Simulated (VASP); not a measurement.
# Valence-band splitting and top-band hole masses of InP (F-43m) under uniaxial [001] stress, from TB-mBJ with spin-orbit coupling

We calculate the three highest valence levels of InP at the zone centre, and the mass of the top hole band, for [001] strains from −2 % to +2 % with the stress across the axis relaxed to zero. The question is how far strain separates the levels and how the top-band mass differs between compression and tension. This matters for strained layers in lasers and transistors, where the splitting decides which band the holes occupy and the mass along the current path affects their mobility. Level depths are counted downward from the valence-band top of the same strained cell, and masses are in units of the free-electron mass. The cells are LDA cells; the levels and masses come from TB-mBJ with spin-orbit coupling.

## Computational details

The start is a typed prototype cell. The crystal was relaxed with LDA. Strain is imposed along [001]; the strain across the axis is adjusted until the stress across it vanishes, and the atoms are relaxed with LDA. VASP 6.6.1, plane waves with PAW, cutoff 450 eV, no spin polarisation. Band edges are single points at TB-mBJ with spin-orbit coupling on these cells, k mesh 7×7×7, read on short lines of k points at the zone centre and through the valleys; energies are counted from the valence-band top at the zone centre. Each level is the mean of a Kramers pair; masses are fitted within 0.05 1/Å of the zone centre and are rough where two bands nearly touch. All levels use the PAW data sets made with LDA.

Notes on method and selection:

- Runs that did not converge, have known faults or may not be shown are not listed, and runs on Ansatz's PAW sets soft_1 and soft_2 are kept to separate tables.

Columns:

- strain (%): strain along the axis (tension positive).
- second level (eV): second valence level below the top at Γ.
- third level (eV): third valence level below the top at Γ.
- mass, axis (mₑ): mass of the top hole band along the axis.
- mass, across (mₑ): mass of the top hole band across the axis.

Input lines of one member:

```
PREC = Accurate
ENCUT = 450
EDIFF = 1E-06
NELM = 150
ISMEAR = 0
SIGMA = 0.02
LREAL = .FALSE.
ALGO = Normal
METAGGA = MBJ
LASPH = .TRUE.
LNONCOLLINEAR = .TRUE.
NBANDS = 28
GGA_COMPAT = .FALSE.
LSORBIT = .TRUE.
KPAR = 2
```

Command (options for logging and memory left out): `mpirun -np 2 vasp_ncl`

## Results

| member | sign of the strain | strain (%) | second level (eV) | third level (eV) | mass, axis (mₑ) | mass, across (mₑ) |
| --- | --- | --- | --- | --- | --- | --- |
| −2 % | compression | −2.0 | 0.1085 | 0.179 | 0.132 | 0.441 |
| −1.5 % | compression | −1.5 | 0.07930 | 0.151 | 0.134 | 0.432 |
| −1 % | compression | −1.0 | ? | ? | ? | ? |
| −0.5 % | compression | −0.5 | 0.02380 | 0.103 | 0.129 | 0.400 |
| 0 % | compression | 0.0 | 3.00×10⁻⁴ | 0.087 | 0.495 | 0.472 |
| 0 % | tension | 0.0 | 3.00×10⁻⁴ | 0.087 | 0.495 | 0.472 |
| +0.5 % | tension | 0.5 | 0.01870 | 0.102 | 0.495 | 0.226 |
| +1 % | tension | 1.0 | 0.03040 | 0.123 | 0.496 | 0.215 |
| +1.5 % | tension | 1.5 | 0.03730 | 0.149 | 0.488 | 0.209 |
| +2 % | tension | 2.0 | 0.04100 | 0.180 | 0.488 | 0.208 |

Cells marked ? are withheld until the estimate has been made.

Least-squares fits to the members shown, with x = strain (%); R² and errors in the fitted variable (y, or ln y where the fit is in ln y):

| y | sign of the strain | members | fit | R² | rms residual | leave-one-out rms | the same for the mean of the others |
| --- | --- | --- | --- | --- | --- | --- | --- |
| third level (eV) | compression | 4 | y = 0.08360 − 0.04640 x | 0.99 | 0.0031 | 0.0070 | 0.049 |
| third level (eV) | tension | 5 | y = 0.08160 + 0.04660 x | 0.98 | 0.0044 | 0.0092 | 0.042 |
| second level (eV) | compression | 4 | y = −0.001405 − 0.05438 x | 1.00 | 0.0015 | 0.0034 | 0.057 |
| second level (eV) | tension | 5 | y = 0.005540 + 0.02000 x | 0.92 | 0.0041 | 0.0085 | 0.018 |

## Interpretation

Either sign of strain splits the upper pair, but compression does so more strongly. At 2 % the second level lies 0.1085 eV below the top in compression and 0.0410 eV in tension, a ratio of 0.1085 / 0.0410 = 2.65. The third level is almost even in strain, at 0.179 and 0.180 eV.

The atoms keep their ideal fractional positions, so the change of cell shape alone separates the p orbital along the axis, $p_z$, from $p_x$ and $p_y$. Spin-orbit coupling mixes them into states with $m_j=\pm3/2$, which contain no $p_z$, and $m_j=\pm1/2$, which do. Strain also couples the upper $\pm1/2$ state to the split-off state, which pushes it upward. In compression it is already the top level, so the push widens the upper splitting. In tension it is the second level, and the push holds it near the top.

The same ordering sets the masses. A p orbital disperses strongly along its own direction. The compressed top band, rich in $p_z$, is therefore light along the axis (0.129 to 0.134) and heavy across it (0.400 to 0.441). The stretched top band is heavy along the axis (0.488 to 0.496) and lighter across it (0.208 to 0.226). From −2 % to +2 % the axial mass rises by a factor of 0.488 / 0.132 = 3.70, while the transverse mass falls by 0.441 / 0.208 = 2.12.

The unstrained masses, 0.495 and 0.472, are not a midpoint between these regimes. The upper levels there are only 0.0003 eV apart, a remnant of slight residual strain, and the fit follows the heavier branch in both directions. TB-mBJ tends to make masses too heavy, so the reversal of the anisotropy is firmer than the absolute values.

## An estimate before looking

Plain estimates from the members shown:

- −1 % (compression), fit at x = −1.0: 0.130 eV
- −1 % (compression), straight-line interpolation between −1.5 % and −0.5 %: w = (−1.0 − (−1.5)) / (−0.5 − (−1.5)) = 0.500, so 0.151 + 0.500 × (0.103 − 0.151) = 0.127 eV

Both plain estimates for −1 %, 0.130 eV from the fit and 0.127 eV from interpolation, should be too high, because the third level curves upward with compression and a chord lies above such a curve. We therefore interpolate the strain energy $Q$ that enters the coupling of the two $m_j=\pm1/2$ states, since it should be nearly linear in strain. Let strain shift $p_z$ by $+2Q$ and $p_x$, $p_y$ by $-Q$. The two $m_j=\pm1/2$ states then lie $D+Q$ apart before they mix, and are coupled by $\sqrt{2}\,Q$. In compression the depth of the third level is their separation after mixing, $\sqrt{(D+Q)^2+8Q^2}$, or

$$t=\sqrt{D^2+2DQ+9Q^2},$$

with $D$ = 0.087 eV from the unstrained row.

Solving for $Q$ gives (√(9 × 0.103² − 8 × 0.087²) − 0.087) / 9 = 0.0111 eV at −0.5 % and (√(9 × 0.151² − 8 × 0.087²) − 0.087) / 9 = 0.0326 eV at −1.5 %. Halfway between, $Q$ = (0.0111 + 0.0326) / 2 = 0.0218 eV, and

√(0.087² + 2 × 0.087 × 0.0218 + 9 × 0.0218²) = 0.125 eV.

As a trial, we interpolated $Q$ between −2 % and −0.5 % to recover the −1.5 % row. This gives 0.151 eV, as shown in the table. The −0.5 % row, recovered from 0 % and −1.5 %, has $Q$ = 0.0326 / 3 = 0.0109 eV and comes out at √(0.087² + 2 × 0.087 × 0.0109 + 9 × 0.0109²) = 0.1026 eV against 0.103 eV.

These misses are no larger than the printed rounding. The model is less exact for the second level, which it places 0.0009 eV too deep at −0.5 % and 0.0016 eV too deep at −1.5 %. We take 0.001 eV as the standard deviation.

**Committed estimate, −1 % (compression): third level = 0.125 ± 0.001 eV.**

## Result

| member | sign of the strain | strain (%) | second level (eV) | third level (eV) | mass, axis (mₑ) | mass, across (mₑ) |
| --- | --- | --- | --- | --- | --- | --- |
| −1 % | compression | −1.0 | 0.05070 | 0.125 | 0.139 | 0.421 |

| member | estimate | third level (eV) | computed | estimate − computed | miss in error bars |
| --- | --- | --- | --- | --- | --- |
| −1 % (compression) | committed | 0.125 | 0.125 | 0.000 | 0.0 |
| −1 % (compression) | fit | 0.130 | 0.125 | +0.005 |  |
| −1 % (compression) | interpolation | 0.127 | 0.125 | +0.002 |  |

third level (eV) against strain (%):

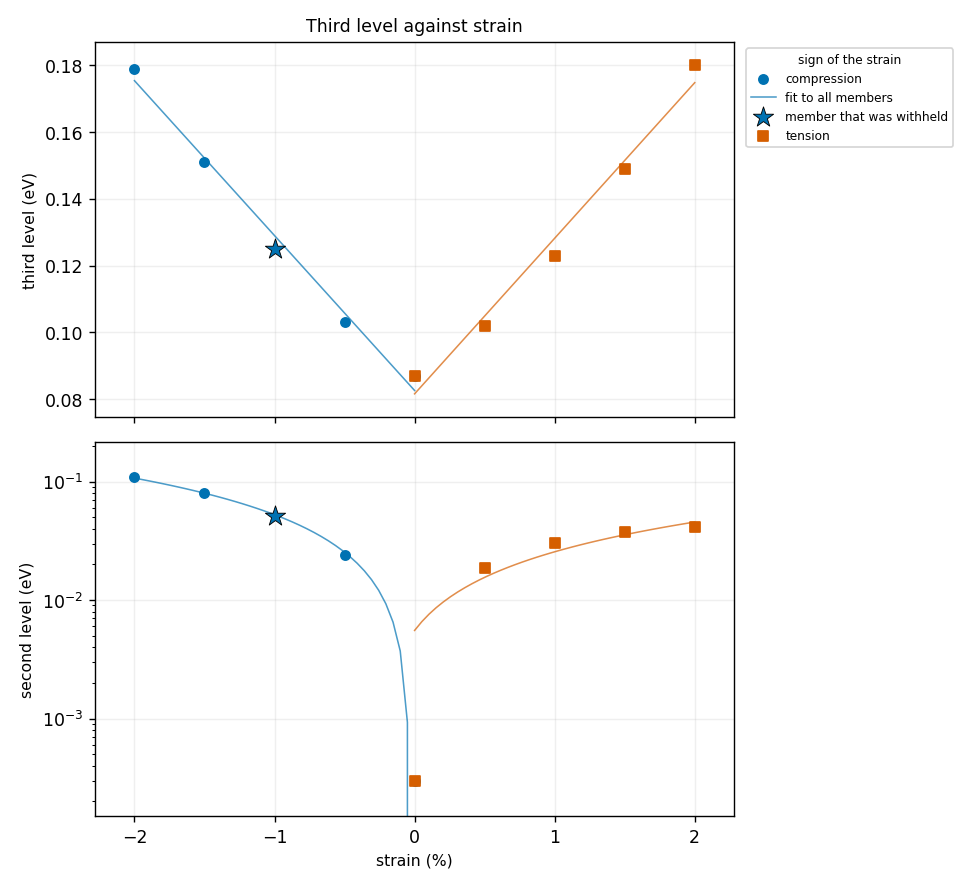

The estimate of 0.125 eV agrees with the computed value to the printed digit, well inside its error bar of 0.001 eV. Interpolation was 0.002 eV too high and the straight-line fit 0.005 eV too high, as expected for a level that curves upward with strain.

This agreement confirms the curvature more than its cause, because any smooth curve through the neighbouring rows would land close to the same value. The second level is a sharper test of the coupling between the two $m_j=\pm1/2$ states. With the same $Q$, the model puts it at (3 × 0.0218 + 0.125 − 0.087) / 2 = 0.0517 eV, against 0.0507 eV computed. Of this, the direct strain shift supplies 2 × 0.0218 = 0.0436 eV and the coupling the smaller remainder. The model thus reproduces the splitting closely, but again places this level slightly too deep, as it did at −0.5 % and −1.5 %. A single strain energy with a fixed spin-orbit splitting is a little too simple.

Our range for the axial mass in compression, 0.129 to 0.134, was too narrow: the new row has 0.139.

## Residuals

Least-squares fits to the whole series, with x = strain (%); R² and errors in the fitted variable (y, or ln y where the fit is in ln y):

| y | sign of the strain | members | fit | R² | rms residual | leave-one-out rms | the same for the mean of the others |
| --- | --- | --- | --- | --- | --- | --- | --- |
| third level (eV) | compression | 5 | y = 0.08260 − 0.04640 x | 0.99 | 0.0034 | 0.0070 | 0.041 |
| third level (eV) | tension | 5 | y = 0.08160 + 0.04660 x | 0.98 | 0.0044 | 0.0092 | 0.042 |
| second level (eV) | compression | 5 | y = −0.001860 − 0.05438 x | 1.00 | 0.0016 | 0.0033 | 0.048 |
| second level (eV) | tension | 5 | y = 0.005540 + 0.02000 x | 0.92 | 0.0041 | 0.0085 | 0.018 |

Largest departures from the fit to the whole series:

| member | sign of the strain | third level (eV) | fit | computed − fit | in rms residuals |
| --- | --- | --- | --- | --- | --- |
| 0 % | compression | 0.087 | 0.083 | +0.004 | 1.3 |
| 0 % | tension | 0.087 | 0.082 | +0.005 | 1.2 |
| −1 % | compression | 0.125 | 0.129 | −0.004 | 1.2 |
| +1 % | tension | 0.123 | 0.128 | −0.005 | 1.2 |

No third level stands out, since the largest departures are only 1.2 to 1.3 rms residuals. Their signs show that the straight line is the wrong shape: the unstrained cell lies 0.004 to 0.005 eV above the fits, and the cells at −1 % and +1 % lie 0.004 and 0.005 eV below. In compression the level deepens by 0.016 eV over the first half per cent and by 0.028 eV over the last.

The axial masses at −0.5 % and −1 %, 0.129 and 0.139, are uneven beside 0.134 and 0.132 at larger compression. The fitting window may contribute. At its edge a band has fallen by about $3.81\,k^2/m$ (in eV, with $k$ in 1/Å). For the top band this is 3.81 × 0.05² / 0.129 = 0.074 eV at −0.5 % and 3.81 × 0.05² / 0.139 = 0.069 eV at −1 %. A heavy band with the unstrained mass of 0.495 falls by only 3.81 × 0.05² / 0.495 = 0.019 eV. Starting from the second level, it reaches 0.0238 + 0.019 = 0.043 eV at −0.5 %, so the bands can cross inside the window, and 0.0507 + 0.019 = 0.070 eV at −1 %, where they nearly meet at its edge. At −1.5 % and −2 % the second level already starts deeper than the top band falls. We therefore read no trend into the axial masses within compression.

## Summary

Between −2 % and +2 %, compression gives a top band that is light along the axis and heavy across it, and tension reverses this. Within compression, the coupled-level formula gives the third level of an intermediate strain to about 0.001 eV. In tension, plain interpolation between +0.5 % and +1.5 % misses the +1 % row by (0.102 + 0.149) / 2 − 0.123 = 0.0025 eV.

For hole filling at room temperature, where the thermal energy is roughly 0.026 eV, a state at the second level is occupied exp(−0.0507 / 0.026) = 0.14 times as often as one at the top for −1 %, and exp(−0.0304 / 0.026) = 0.31 times for +1 %. State for state, compression thus favours the top band more strongly; the actual share of holes also depends on the density of states of each band.

We know of no omitted effect on the splittings as large as the third level's spread of 0.180 − 0.087 = 0.093 eV. The likeliest error of the level itself is a spin-orbit splitting that is somewhat too small, as is common with TB-mBJ.

[Logs are printed without paths, hosts, clocks, repeated set-up lines and the standing remarks that a program may print on its own settings, such as how far it seeks lower states.]
